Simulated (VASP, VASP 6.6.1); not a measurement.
# Lattice constant of ceria: PBEsol meets a 1 % target without a Hubbard term

## Experimental context

The reference is a cubic lattice constant of 5.41168 Å, obtained by synchrotron powder diffraction on a NIST standard powder and averaged over 17 weeks of measurements ("New synchrotron powder diffraction facility for long-duration experiments", 2017, PubMed Central 5294393). The wavelength was recalibrated for each run, possibly on the same standard, so I do not treat the value as fully independent of the certified one. A well-crystallised powder at 90 K gave 5.40512 Å by Rietveld refinement ("Structure and Surface Relaxation of CeO2 Nanoparticles Unveiled by Combining Real and Reciprocal Space Total Scattering Analysis", 2022, PubMed Central 9565251). For the volume of the conventional cell I use 158.4 ± 0.2 Å³, the zero-pressure parameter of an equation of state fitted to single-crystal data under pressure ("Pressure Induced Stability Enhancement of Cubic Nanostructured CeO2", 2020, PubMed Central 7221606).

| compared with | measured | source's wording or label | T (K) | method |
| --- | --- | --- | --- | --- |
| lattice constant a of the conventional cell (Å) | 5.40512 | cubic cell constant a, well-crystallised sample | 90 | synchrotron powder XRD, Rietveld refinement |
| volume of the conventional cell (Å³) | 158.4 ± 0.2 | V0 of conventional cubic cell from third-order Birch-Murnaghan fit | – | high-pressure single-crystal XRD, EOS fit |
| lattice constant a of the conventional cell (Å) | 5.41168 | cubic a, average of weekly measurements over 17 weeks | – | synchrotron X-ray powder diffraction, refinement * |

Where a quantity has several values, deviations refer to the one marked *.

Conditions are those given with the value in the passage it was taken from; "not stated" means there, and the paper may say more elsewhere. The values are a selection: others may have been left out beforehand as unlike or outlying.

## Aim and plan

I want the cheapest level of theory that gives the lattice constant of bulk ceria within 1 % and the volume of the conventional cell within 2 %. In a cubic crystal the volume error is about three times the length error, so the volume condition is the stricter one: it allows roughly 0.7 % in length. That is tight enough to expose the usual errors of semilocal functionals, which reach about 1 % in either direction, and wide enough to cover what static nuclei leave out. Thermal expansion and zero-point motion together should make the measured cell longer than the static one by a few tenths of a per cent.

The model is the defect-free fluorite crystal in a six-atom cell with two Ce atoms, which lets the starting moments alternate. With formally empty 4f states these moments should vanish; a surviving moment would signal a different electronic state. The relaxation starts from a diffraction cell stretched by 3 % in volume, so the functional has to find its own way back.

I begin with a semilocal functional on a coarse mesh, then test mesh and cutoff, and only then compare functionals. A Hubbard term on Ce 4f or a meta-GGA comes in if the simpler levels call for it.

System: CeO2, space group Fm-3m (Cerianite); Fm-3m (No. 225), 6 atoms in the cell; conventional a = 5.411 A, from a published structure refinement (COD).

On the selection of runs and values: 2 further cited values are not listed: repeats, values quoted from earlier work, more than five for one quantity or six quantities, or quantities that fewer than three runs give.

## 1. PBEsol on a coarse mesh

PBEsol was built with the lattice constants of solids in mind and costs about as much as any other GGA. For an insulator with a wide gap a 4×4×4 mesh may already be enough, so I start there, with a cutoff of 520 eV. I expect a cell slightly shorter than the measured one and no moment on Ce.

**Run 1.** VASP 6.6.1: PBEsol, alternating starting moments; 520 eV, 4x4x4 k mesh; cell and atoms relaxed, relaxed twice, LASPH on.

Key lines of the input:
```
ALGO = Normal
AMIX = 0.2
AMIX_MAG = 0.8
BMIX = 1E-04
BMIX_MAG = 1E-04
EDIFF = 1E-06
EDIFFG = -0.006
ENCUT = 520
GGA = PS
IBRION = 2
ISIF = 3
ISMEAR = 0
ISPIN = 2
LASPH = .TRUE.
LMAXMIX = 6
MAGMOM = 1 -1 0 0 0 0
NBANDS = 33
NELM = 150
NSW = 50
PREC = Accurate
SIGMA = 0.03
KPOINTS: Gamma, 4 4 4
PAW data sets: Ce O (PBE 64)
```

Command:
```
mpirun -np 8 vasp_std
```

Selected lines of the output:
```
   3 F= -.55093731E+02 E0= -.55093731E+02  d E =-.621050E-01  mag=    -0.0000
  external PRESSURE =       0.0050906 kB  Pullay stress =       0.0000000 kB
  volume of cell :       78.63
```

Converged; 2.8 min on 8 cores of Intel Xeon Platinum 8375C at 2.90GHz (Ice Lake), shared host.

| quantity | run 1 | measured | deviation |
| --- | --- | --- | --- |
| lattice constant a of the conventional cell (Å) | 5.3976 | 5.41168 | −0.0141 (−0.3 %) |
| volume of the conventional cell (Å³) | 157.25 | 158.4 ± 0.2 | −1.15 (−0.7 %) |
| largest moment in a PAW sphere (μB) | 0 |  |  |
| space group at the end | Fm-3m |  |  |
| pressure left at the end (GPa) | 0.00051 |  |  |

PBEsol brings the stretched cell back to 5.3976 Å, 0.3 % short of the reference, and the volume comes out 0.7 % small. Both lie inside the target with room to spare. The alternating starting moments have vanished, which fits formally empty 4f states, and the cubic symmetry is intact.

The sign needs attention. No temperature is given with the reference value; I take it to be room temperature. A static cell should be somewhat shorter than such a measured one, so part of the shortfall belongs to the missing nuclear motion and not to the functional.

## 2. Mesh and cutoff for PBEsol

Before I credit the functional I need to know what the numerical settings contribute. I repeat the relaxation on an 8×8×8 mesh at 520 eV, which tests the mesh alone, and then on that mesh at 400 and 680 eV, which tests the cutoff from both sides. I expect the mesh to matter little in a wide-gap insulator. The 400 eV run is the more doubtful one, because oxygen 2p states need a fairly high cutoff; if it holds, the level becomes cheaper still.

**Run 2.** VASP 6.6.1: PBEsol, alternating starting moments; 520 eV, 8x8x8 k mesh; cell and atoms relaxed, relaxed twice, LASPH on.

Key lines of the input, as changed from run 1:
```diff
- KPOINTS: Gamma, 4 4 4
+ KPOINTS: Gamma, 8 8 8
```

Selected lines of the output:
```
  volume of cell :       78.63
```

Converged; 6.3 min, same machine.

**Run 3.** VASP 6.6.1: PBEsol, alternating starting moments; 400 eV, 8x8x8 k mesh; cell and atoms relaxed, relaxed twice, LASPH on.

Key lines of the input, as changed from run 2:
```diff
- ENCUT = 520
+ ENCUT = 400
```

Selected lines of the output:
```
  external PRESSURE =       0.0360621 kB  Pullay stress =       0.0000000 kB
  volume of cell :       76.69
```

Converged; 6.3 min, same machine.

**Run 4.** VASP 6.6.1: PBEsol, alternating starting moments; 680 eV, 8x8x8 k mesh; cell and atoms relaxed, relaxed twice, LASPH on.

Key lines of the input, as changed from run 2:
```diff
- ENCUT = 520
+ ENCUT = 680
```

Selected lines of the output:
```
  volume of cell :       78.57
```

Converged; 11 min, same machine.

| quantity | run 2 | run 3 | run 4 | measured |
| --- | --- | --- | --- | --- |
| lattice constant a of the conventional cell (Å) | 5.3977 | 5.3529 | 5.3963 | 5.41168 |
| volume of the conventional cell (Å³) | 157.26 | 153.38 | 157.14 | 158.4 ± 0.2 |
| largest moment in a PAW sphere (μB) | 0 | 0 | 0 |  |
| space group at the end | Fm-3m | Fm-3m | Fm-3m |  |
| pressure left at the end (GPa) | −0.05956 | 0.00361 | −0.03781 |  |

The mesh is settled: going from 4×4×4 to 8×8×8 moves the lattice constant by only 0.0001 Å. Raising the cutoff from 520 to 680 eV shortens it by 0.0014 Å, far below the target.

The 400 eV run is a different matter. It gives 5.3529 Å, which misses the 1 % limit on length narrowly and the 2 % limit on volume clearly, at 153.38 Å³. Its final pressure is nevertheless close to zero, even after the second relaxation. The usual cause is the Pulay error: the stress is balanced within a basis that is too small, which pulls the cell inwards. A vanishing pressure therefore says nothing about whether the cutoff suffices, and the zero "Pullay stress" in the output line only echoes an input setting and does not measure this error. I keep 520 eV, and the 4×4×4 mesh is enough for PBEsol.

## 3. LDA and PBE for comparison

PBEsol passes, but LDA and PBE belong to the same cost class, and I want to know whether the choice among them matters for this target. I run both at 520 eV on the 8×8×8 mesh. From their usual errors I expect LDA to give a cell about 1 % too short and PBE one up to 1 % too long, which would put both near or beyond the volume limit.

**Run 5.** VASP 6.6.1: LDA, alternating starting moments; 520 eV, 8x8x8 k mesh; cell and atoms relaxed, relaxed twice, LASPH on.

Key lines of the input, as changed from run 2:
```diff
- GGA = PS
+ GGA = CA
- PAW data sets: Ce O (PBE 64)
+ PAW data sets: Ce O (LDA 64)
```

Selected lines of the output:
```
  volume of cell :       77.09
```

Converged; 7.7 min, same machine.

**Run 6.** VASP 6.6.1: PBE, alternating starting moments; 520 eV, 8x8x8 k mesh; cell and atoms relaxed, LASPH on.

Key lines of the input, as changed from run 2:
```diff
- GGA = PS
+ GGA = PE
```

Selected lines of the output:
```
  volume of cell :       81.54
```

Converged; 3 min, same machine.

| quantity | run 5 | run 6 | measured |
| --- | --- | --- | --- |
| lattice constant a of the conventional cell (Å) | 5.3622 | 5.4635 | 5.41168 |
| volume of the conventional cell (Å³) | 154.18 | 163.09 | 158.4 ± 0.2 |
| largest moment in a PAW sphere (μB) | 0 | 0 |  |
| space group at the end | Fm-3m | Fm-3m |  |
| pressure left at the end (GPa) | 0.00782 | −0.00342 |  |

LDA and PBE err in opposite directions and by nearly the same amount. LDA gives 5.3622 Å, 0.9 % short, and PBE 5.4635 Å, 1.0 % long. Both pass the 1 % limit on length narrowly, but the volumes, 154.18 and 163.09 Å³, are off by 2.7 and 3.0 % and miss the stricter condition. PBEsol lies between them and meets both conditions at no higher class of cost, so the choice of functional does matter here.

## 4. A Hubbard term on Ce 4f

The 4f states of ceria are only formally empty: they mix with oxygen 2p, and semilocal functionals tend to exaggerate such covalency. Calculations on reduced ceria usually add a Hubbard term to localise the Ce³⁺ electrons, so it is useful to know what that term does to the perfect crystal. I add 6 eV on Ce to PBEsol and to LDA. Pushing the 4f states up should weaken their share in the bonding and lengthen the cell, which could bring LDA inside the volume limit and carry PBEsol past the reference.

**Run 7.** VASP 6.6.1: PBEsol+U (Ce 6 eV), alternating starting moments; 520 eV, 8x8x8 k mesh; cell and atoms relaxed, LASPH on.

Key lines of the input, as changed from run 2:
```diff
+ LDAU = .TRUE.
+ LDAUJ = 0 0
+ LDAUL = 3 -1
+ LDAUTYPE = 2
+ LDAUU = 6 0
```

Selected lines of the output:
```
   3 F= -.50581725E+02 E0= -.50581725E+02  d E =-.398384E-02  mag=    -0.0000
  volume of cell :       80.88
```

Converged; 4.4 min, same machine.

**Run 8.** VASP 6.6.1: LDA+U (Ce 6 eV), alternating starting moments; 520 eV, 8x8x8 k mesh; cell and atoms relaxed, relaxed twice, LASPH on.

Key lines of the input, as changed from run 7:
```diff
- GGA = PS
+ GGA = CA
- PAW data sets: Ce O (PBE 64)
+ PAW data sets: Ce O (LDA 64)
```

Selected lines of the output:
```
   3 F= -.53001859E+02 E0= -.53001859E+02  d E =-.375106E-01  mag=    -0.0000
  volume of cell :       79.44
```

Converged; 11 min, same machine.

| quantity | run 7 | run 8 | measured |
| --- | --- | --- | --- |
| lattice constant a of the conventional cell (Å) | 5.4486 | 5.4161 | 5.41168 |
| volume of the conventional cell (Å³) | 161.75 | 158.88 | 158.4 ± 0.2 |
| largest moment in a PAW sphere (μB) | 0 | 0 |  |
| space group at the end | Fm-3m | Fm-3m |  |
| pressure left at the end (GPa) | −0.00888 | −0.05425 |  |

The Hubbard term lengthens the cell by about the same amount in both functionals, 0.051 Å for PBEsol (run 7 against run 2) and 0.054 Å for LDA (run 8 against run 5). The direction fits the argument that less 4f admixture weakens the bonding. No moment appears, so the 4f shell stays formally empty.

For LDA the shift removes the shortfall: 5.4161 Å is 0.1 % above the reference, and the volume passes as well. This rests on an overbinding functional offset by a repulsive correction of chosen size, so I do not read the closeness as a sign of better physics. PBEsol+U overshoots to 5.4486 Å. Its length passes, but its volume of 161.75 Å³ is about 2.1 % above the measured value. The upper end of the measured uncertainty would bring it just inside the limit, so I leave that call undecided. For the perfect crystal, PBEsol gains nothing from a term of 6 eV; other values of U are not shown in this report.

## 5. A denser mesh for plain PBEsol

Plain PBEsol is the simplest level that meets both conditions, so the verdict will rest on it. The cutoff has been checked upwards, and I now take the mesh one step further, to 10×10×10 at 520 eV. After the tiny change between the first two meshes I expect no movement that matters.

**Run 9.** VASP 6.6.1: PBEsol, alternating starting moments; 520 eV, 10x10x10 k mesh; cell and atoms relaxed, relaxed twice, LASPH on.

Key lines of the input, as changed from run 1:
```diff
- KPOINTS: Gamma, 4 4 4
+ KPOINTS: Gamma, 10 10 10
```

Selected lines of the output:
```
  volume of cell :       78.62
```

Converged; 10 min, same machine.

| quantity | run 9 | measured | deviation |
| --- | --- | --- | --- |
| lattice constant a of the conventional cell (Å) | 5.3975 | 5.41168 | −0.0141 (−0.3 %) |
| volume of the conventional cell (Å³) | 157.25 | 158.4 ± 0.2 | −1.15 (−0.7 %) |
| largest moment in a PAW sphere (μB) | 0 |  |  |
| space group at the end | Fm-3m |  |  |
| pressure left at the end (GPa) | −0.00484 |  |  |

The 10×10×10 mesh gives 5.3975 Å, within 0.0002 Å of both coarser meshes. Differences this small can come from where each relaxation happens to stop, so I read no trend into them. The 4×4×4 mesh is sufficient for PBEsol at this target, and the remaining shortfall of 0.3 % does not come from the sampling of the Brillouin zone.

With mesh and cutoff both checked for plain PBEsol, and both conditions met, I end the series here. A dearer functional is not needed for the accuracy I set out to reach.

## Overview

| run | settings | lattice constant a of the conventional cell (Å) | deviation | volume of the conventional cell (Å³) | deviation | cost |
| --- | --- | --- | --- | --- | --- | --- |
| 1 | PBEsol, 520 eV, 4x4x4 k mesh, relaxed twice | 5.3976 | −0.0141 (−0.3 %) | 157.25 | −1.15 (−0.7 %) | 22 core-min |
| 2 | PBEsol, 520 eV, 8x8x8 k mesh, relaxed twice | 5.3977 | −0.0140 (−0.3 %) | 157.26 | −1.14 (−0.7 %) | 51 core-min |
| 3 | PBEsol, 400 eV, 8x8x8 k mesh, relaxed twice | 5.3529 | −0.0587 (−1.1 %) | 153.38 | −5.02 (−3.2 %) | 50 core-min |
| 4 | PBEsol, 680 eV, 8x8x8 k mesh, relaxed twice | 5.3963 | −0.0154 (−0.3 %) | 157.14 | −1.26 (−0.8 %) | 1.5 core-h |
| 5 | LDA, 520 eV, 8x8x8 k mesh, relaxed twice | 5.3622 | −0.0495 (−0.9 %) | 154.18 | −4.22 (−2.7 %) | 61 core-min |
| 6 | PBE, 520 eV, 8x8x8 k mesh | 5.4635 | +0.0518 (+1.0 %) | 163.09 | +4.69 (+3.0 %) | 24 core-min |
| 7 | PBEsol+U (Ce 6 eV), 520 eV, 8x8x8 k mesh | 5.4486 | +0.0369 (+0.7 %) | 161.75 | +3.35 (+2.1 %) | 35 core-min |
| 8 | LDA+U (Ce 6 eV), 520 eV, 8x8x8 k mesh, relaxed twice | 5.4161 | +0.0044 (+0.1 %) | 158.88 | +0.48 (+0.3 %) | 86 core-min |
| 9 | PBEsol, 520 eV, 10x10x10 k mesh, relaxed twice | 5.3975 | −0.0141 (−0.3 %) | 157.25 | −1.15 (−0.7 %) | 83 core-min |
|  | measured | 5.41168 |  | 158.4 ± 0.2 |  |  |

The runs in order, against the measurement:

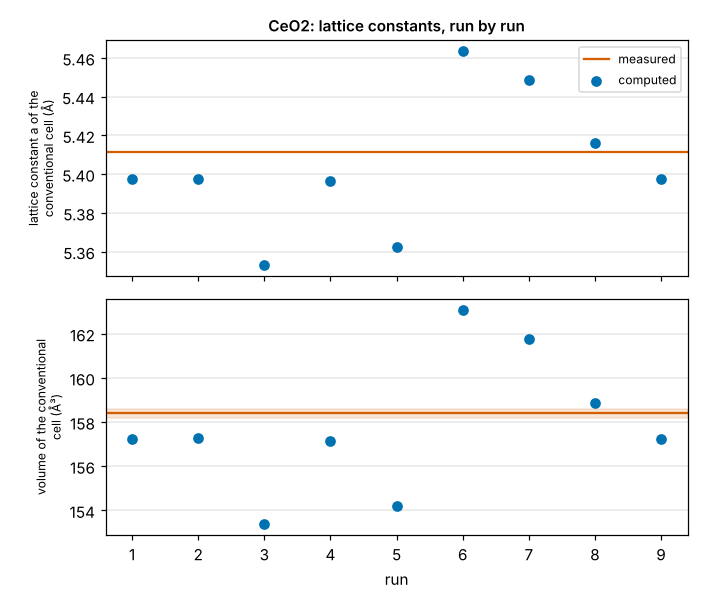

Further runs on the same system, made beside this series (convergence steps with loose settings among them):

| further | settings | lattice constant a of the conventional cell (Å) | deviation | volume of the conventional cell (Å³) | deviation | cost |
| --- | --- | --- | --- | --- | --- | --- |
| F1 | r2SCAN, 520 eV, 8x8x8 k mesh, relaxed twice | 5.4348 | +0.0231 (+0.4 %) | 160.52 | +2.12 (+1.3 %) | 2.7 core-h |
| F2 | PBEsol + D3(BJ), 520 eV, 8x8x8 k mesh, relaxed twice | 5.3684 | −0.0433 (−0.8 %) | 154.71 | −3.69 (−2.3 %) | 44 core-min |
|  | measured | 5.41168 |  | 158.4 ± 0.2 |  |  |

## Assessment

Plain PBEsol meets the target. At 520 eV on a 4×4×4 mesh it gives a lattice constant 0.3 % below the reference and a volume 0.7 % below the measured one, for 22 core-minutes. Denser meshes leave this unchanged, and on the 8×8×8 mesh a cutoff of 680 eV shortens the cell by only 0.0014 Å (run 4 against run 2).

The cutoff test mattered most. At 400 eV the same functional fails both conditions, although the pressure left at the end is almost zero. The 10×10×10 mesh only confirmed what the coarser ones had shown.

LDA and PBE pass narrowly on length but fail on volume, with errors of opposite sign. LDA+U comes closest to the reference, through a cancellation: the Hubbard term lengthens a cell that LDA makes too short. The same term takes PBEsol to the edge of the volume limit, where the call stays undecided. Adding D3(BJ) to PBEsol shortens the cell further and fails on volume. r2SCAN passes both conditions with a cell 0.4 % too long, so the dearer functional brings no gain for this target.

The shortfall of PBEsol has the sign and rough size expected from the missing thermal expansion and zero-point motion; a calculation of either is not shown in this report. Allowing for them would bring PBEsol closer to experiment and widen the misses of PBE, r2SCAN and both +U levels. It would also help the levels that fall short: a few tenths of a per cent in length is up to about 1 % in volume, which could bring LDA and PBEsol with D3(BJ) to or inside the volume limit, so their failure holds only for the uncorrected comparison.

Agreement in the lattice constant alone does not prove that PBEsol is right for the right reason. The cell responds clearly to the Hubbard term, which suggests that the 4f admixture affects the bonding, and an exaggerated covalency could be offsetting another error. The result holds for the perfect crystal; reduced ceria, with localised 4f electrons, is a separate problem.

[Logs are printed without paths, hosts, clocks, repeated set-up lines and the standing remarks that a program may print on its own settings, such as how far it seeks lower states.]

[The runs shown are a pick from a larger set of finished runs; failed, doubtful and other runs were left out of it ahead of writing. So were measured values far from every level or from commonly accepted values, and agreement can look better than it is. Lines of input and output are excerpts and may be shortened.]
